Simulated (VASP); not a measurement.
# Pressure, band gap and energy of zinc-blende BN against volume, SCAN level

We calculate the pressure, the smallest band gap and the energy of zinc-blende BN at seven volumes, from 6.12 % below to 5.86 % above the equilibrium volume of the fitted energy curve. The question is how far each quantity moves when the cell is scaled evenly. This matters wherever cubic BN is used as a hard, wide-gap material under load, or wherever a calculation is run at a lattice constant that is slightly off. Positive pressure means a compressed cell and negative pressure a stretched one. Energies are per atom above the lowest row, and the gap is the indirect one, from the zone centre to the mesh point nearest X.

## Set-up

A cell from a diffraction database, relaxed at this level and then scaled evenly, fractional positions kept. VASP 6.6.1, plane waves with PAW, SCAN, cutoff 520 eV, k mesh 11×11×11, no spin polarisation, no spin-orbit coupling, static lattice. A Birch-Murnaghan fit to the energies has its minimum at 5.87 Å³ per atom.

Notes on method and selection:

- The pressure is that of a finite plane-wave basis, so it need not vanish exactly at the minimum of the energy.
- Only series whose fit has its minimum inside the range and an error under 0.5 meV per atom are shown.
- Where rows or columns differ in functional or spin-orbit coupling, non-spherical gradient terms in the PAW spheres (LASPH) may be on in some and off in others.
- Runs that did not converge, have known faults or may not be shown are not listed, and runs on Ansatz's PAW sets soft_1 and soft_2 are kept to separate tables.

Columns:

- volume change (%): volume relative to the fitted equilibrium volume.
- pressure (GPa): pressure from the stress tensor (positive: compressed).
- energy (meV/atom): energy per atom above the lowest point of the series.
- gap (eV): smallest gap on the k mesh.

Input lines of one member:

```
PREC = Accurate
ENCUT = 520
EDIFF = 1E-06
NELM = 100
ISMEAR = 0
SIGMA = 0.05
LREAL = .FALSE.
ALGO = Normal
METAGGA = SCAN
LASPH = .TRUE.
NBANDS = 10
LORBIT = 11
KPAR = 2
ISIF = 2
```

Command (options for logging and memory left out): `mpirun -np 2 vasp_std`

## Computed values

| member | volume change (%) | pressure (GPa) | energy (meV/atom) | gap (eV) |
| --- | --- | --- | --- | --- |
| 5.51 Å³ | −6.12 | 27.45 | 29.7 | 5.163 |
| 5.63 Å³ | −4.12 | 17.49 | 13.0 | 5.134 |
| 5.75 Å³ | −2.13 | 8.41 | 3.3 | 5.106 |
| 5.86 Å³ | −0.13 | 0.13 | 0.0 | 5.078 |
| 5.98 Å³ | 1.87 | −7.41 | 2.4 | 5.049 |
| 6.10 Å³ | 3.87 | −14.29 | 10.1 | 5.020 |
| 6.21 Å³ | 5.86 | −20.57 | 22.7 | 4.991 |

pressure (GPa) against volume change (%):

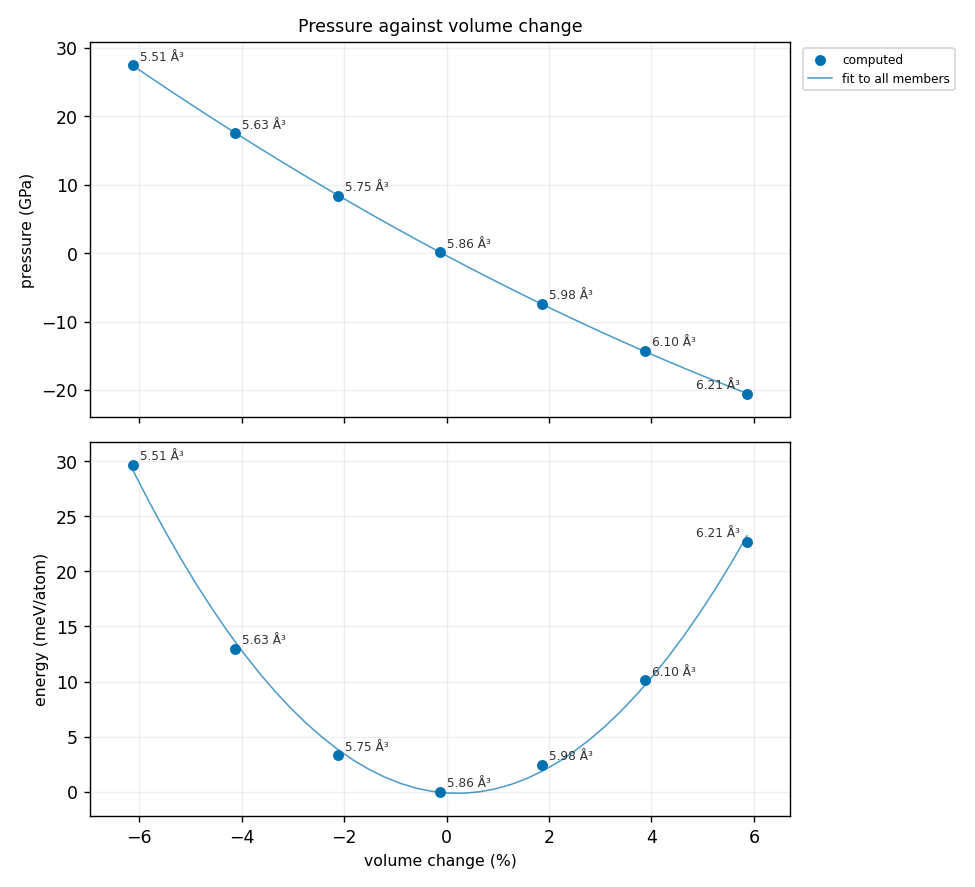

Least-squares fits to the whole series, with x = volume change (%); R² and errors in the fitted variable (y, or ln y where the fit is in ln y):

| y | members | fit | R² | rms residual | leave-one-out rms | the same for the mean of the others |
| --- | --- | --- | --- | --- | --- | --- |
| pressure (GPa) | 7 | y = −0.3824 − 3.972 x + 0.09224 x² | 1.00 | 0.070 | 0.19 | 19 |
| energy (meV/atom) | 7 | y = −0.1223 − 0.3072 x + 0.7315 x² | 1.00 | 0.49 | 1.3 | 12 |

## The trend and its physics

Pressure falls steadily as the cell grows, from 27.45 to −20.57 GPa. Across the centre the slope is (−7.41 − 8.41) / (1.87 + 2.13) = −3.96 GPa per % of volume, which corresponds to a bulk modulus, −V dP/dV, of 3.96 × 100 = 396 GPa. This stiffness comes from short, strong B–N bonds in a three-dimensional network.

The slope is not constant. It is (17.49 − 27.45) / 2.00 = −4.98 GPa per % between the two most compressed rows, and (−20.57 + 14.29) / 1.99 = −3.16 GPa per % between the two most expanded ones. Repulsion between overlapping electron shells rises steeply as the bonds shorten, while the bonding attraction weakens more gradually as they lengthen.

The energy shows the same asymmetry. A harmonic solid would follow $E = \tfrac{1}{2} B V_0 (\Delta V/V_0)^2$. With $B$ = 396 GPa, $V_0$ = 5.87 Å³ and 1 GPa Å³ = 6.24 meV, this gives 27.2 meV/atom at −6.12 % and 24.9 meV/atom at +5.86 %. The computed values are 29.7 and 22.7 meV/atom, so compression costs more than the harmonic estimate and expansion less.

The gap narrows on expansion by (5.163 − 4.991) / 11.98 = 0.0144 eV per %. A straight line through the end rows meets the other five to about 0.001 eV, against a scatter of 0.06 eV about the mean. Shorter bonds couple neighbouring orbitals more strongly and push bonding and antibonding states apart, which widens the gap. The direct gap at the zone centre also shrinks on expansion, and more steeply, so the conduction state near X is the less sensitive of the two.

In silicon the gap towards X closes under pressure instead. The usual explanation for the opposite sign in BN is that first-row elements have no low-lying d states to hold the X state down.

## Outliers

Largest departures from the fit to the whole series:

| member | pressure (GPa) | fit | computed − fit | in rms residuals |
| --- | --- | --- | --- | --- |
| 5.75 Å³ | 8.41 | 8.50 | −0.09 | 1.2 |
| 6.10 Å³ | −14.29 | −14.37 | +0.08 | 1.2 |
| 6.21 Å³ | −20.57 | −20.49 | −0.08 | 1.1 |
| 5.98 Å³ | −7.41 | −7.49 | +0.08 | 1.1 |

The largest departures from the quadratic pressure fit are −0.09 GPa at 5.75 Å³, +0.08 GPa at 5.98 and 6.10 Å³, and −0.08 GPa at 6.21 Å³. None exceeds 1.2 rms residuals. Their signs follow a smooth pattern along the series, as expected when a curve with a cubic part is fitted by a parabola. The energy fit misses in the same pattern, by about 0.5 meV/atom. These departures therefore belong to the fitted form and not to individual cells.

The row at 5.86 Å³ shows a different effect. It lies 0.13 % below the energy minimum, so the central slope would give it a pressure of 0.13 × 3.96 = 0.51 GPa, yet the stress tensor gives 0.13 GPa. The difference of about −0.4 GPa has the sign and size expected of a finite plane-wave basis, whose stress makes the cell appear to want to shrink. It corresponds to only 0.4 / 3.96 = 0.1 % in volume.

## Worked examples

**Which volume corresponds to 10 GPa, and what is the gap there?**
The target lies between the rows at 8.41 and 17.49 GPa. The fraction of the way is (10 − 8.41) / (17.49 − 8.41) = 0.175. The volume change is −2.13 − 0.175 × (4.12 − 2.13) = −2.48 %, and the gap is 5.106 + 0.175 × (5.134 − 5.106) = 5.111 eV. That is 0.033 eV above the row nearest equilibrium.

**What does a lattice constant 1 % too long do to a calculation?**
The volume rises by 1.01³ − 1 = 3.03 %. The gap falls by 3.03 × 0.0144 = 0.044 eV. The pressure fit gives −0.3824 − 3.972 × 3.03 + 0.09224 × 3.03² = −11.6 GPa. The gap therefore changes by less than 1 % of its value, while the pressure is off by about 12 GPa. This applies to even scaling, not to a film strained in its plane only.

**Is one constant bulk modulus enough at 6 % volume change?**
At −6.12 % the constant slope gives 3.96 × 6.12 = 24.2 GPa against 27.45 GPa computed, which is 12 % too low. At +5.86 % it gives a tension of 3.96 × 5.86 = 23.2 GPa against 20.57 GPa, which is 13 % too high. For work at this strain we would use the quadratic fit, whose leave-one-out rms error over the whole series is 0.19 GPa.

## What to take away

Within about 6 % of the equilibrium volume, the gap of zinc-blende BN is linear in volume, while pressure and energy need terms beyond the harmonic ones. The smoothness of the energy curve is partly a condition of selection, since only series with a small fit error are shown.

SCAN gaps of wide-gap solids such as BN lie below measured ones, so the changes in the gap are more useful than its absolute value. The mesh misses X and places the tabled gaps slightly too high, but the same mesh point is used in every row and most of that offset cancels in differences.

The lattice is static. Zero-point and thermal motion would enlarge the equilibrium volume, soften the crystal a little and lower the gap.

[Logs are printed without paths, hosts, clocks, repeated set-up lines and the standing remarks that a program may print on its own settings, such as how far it seeks lower states.]
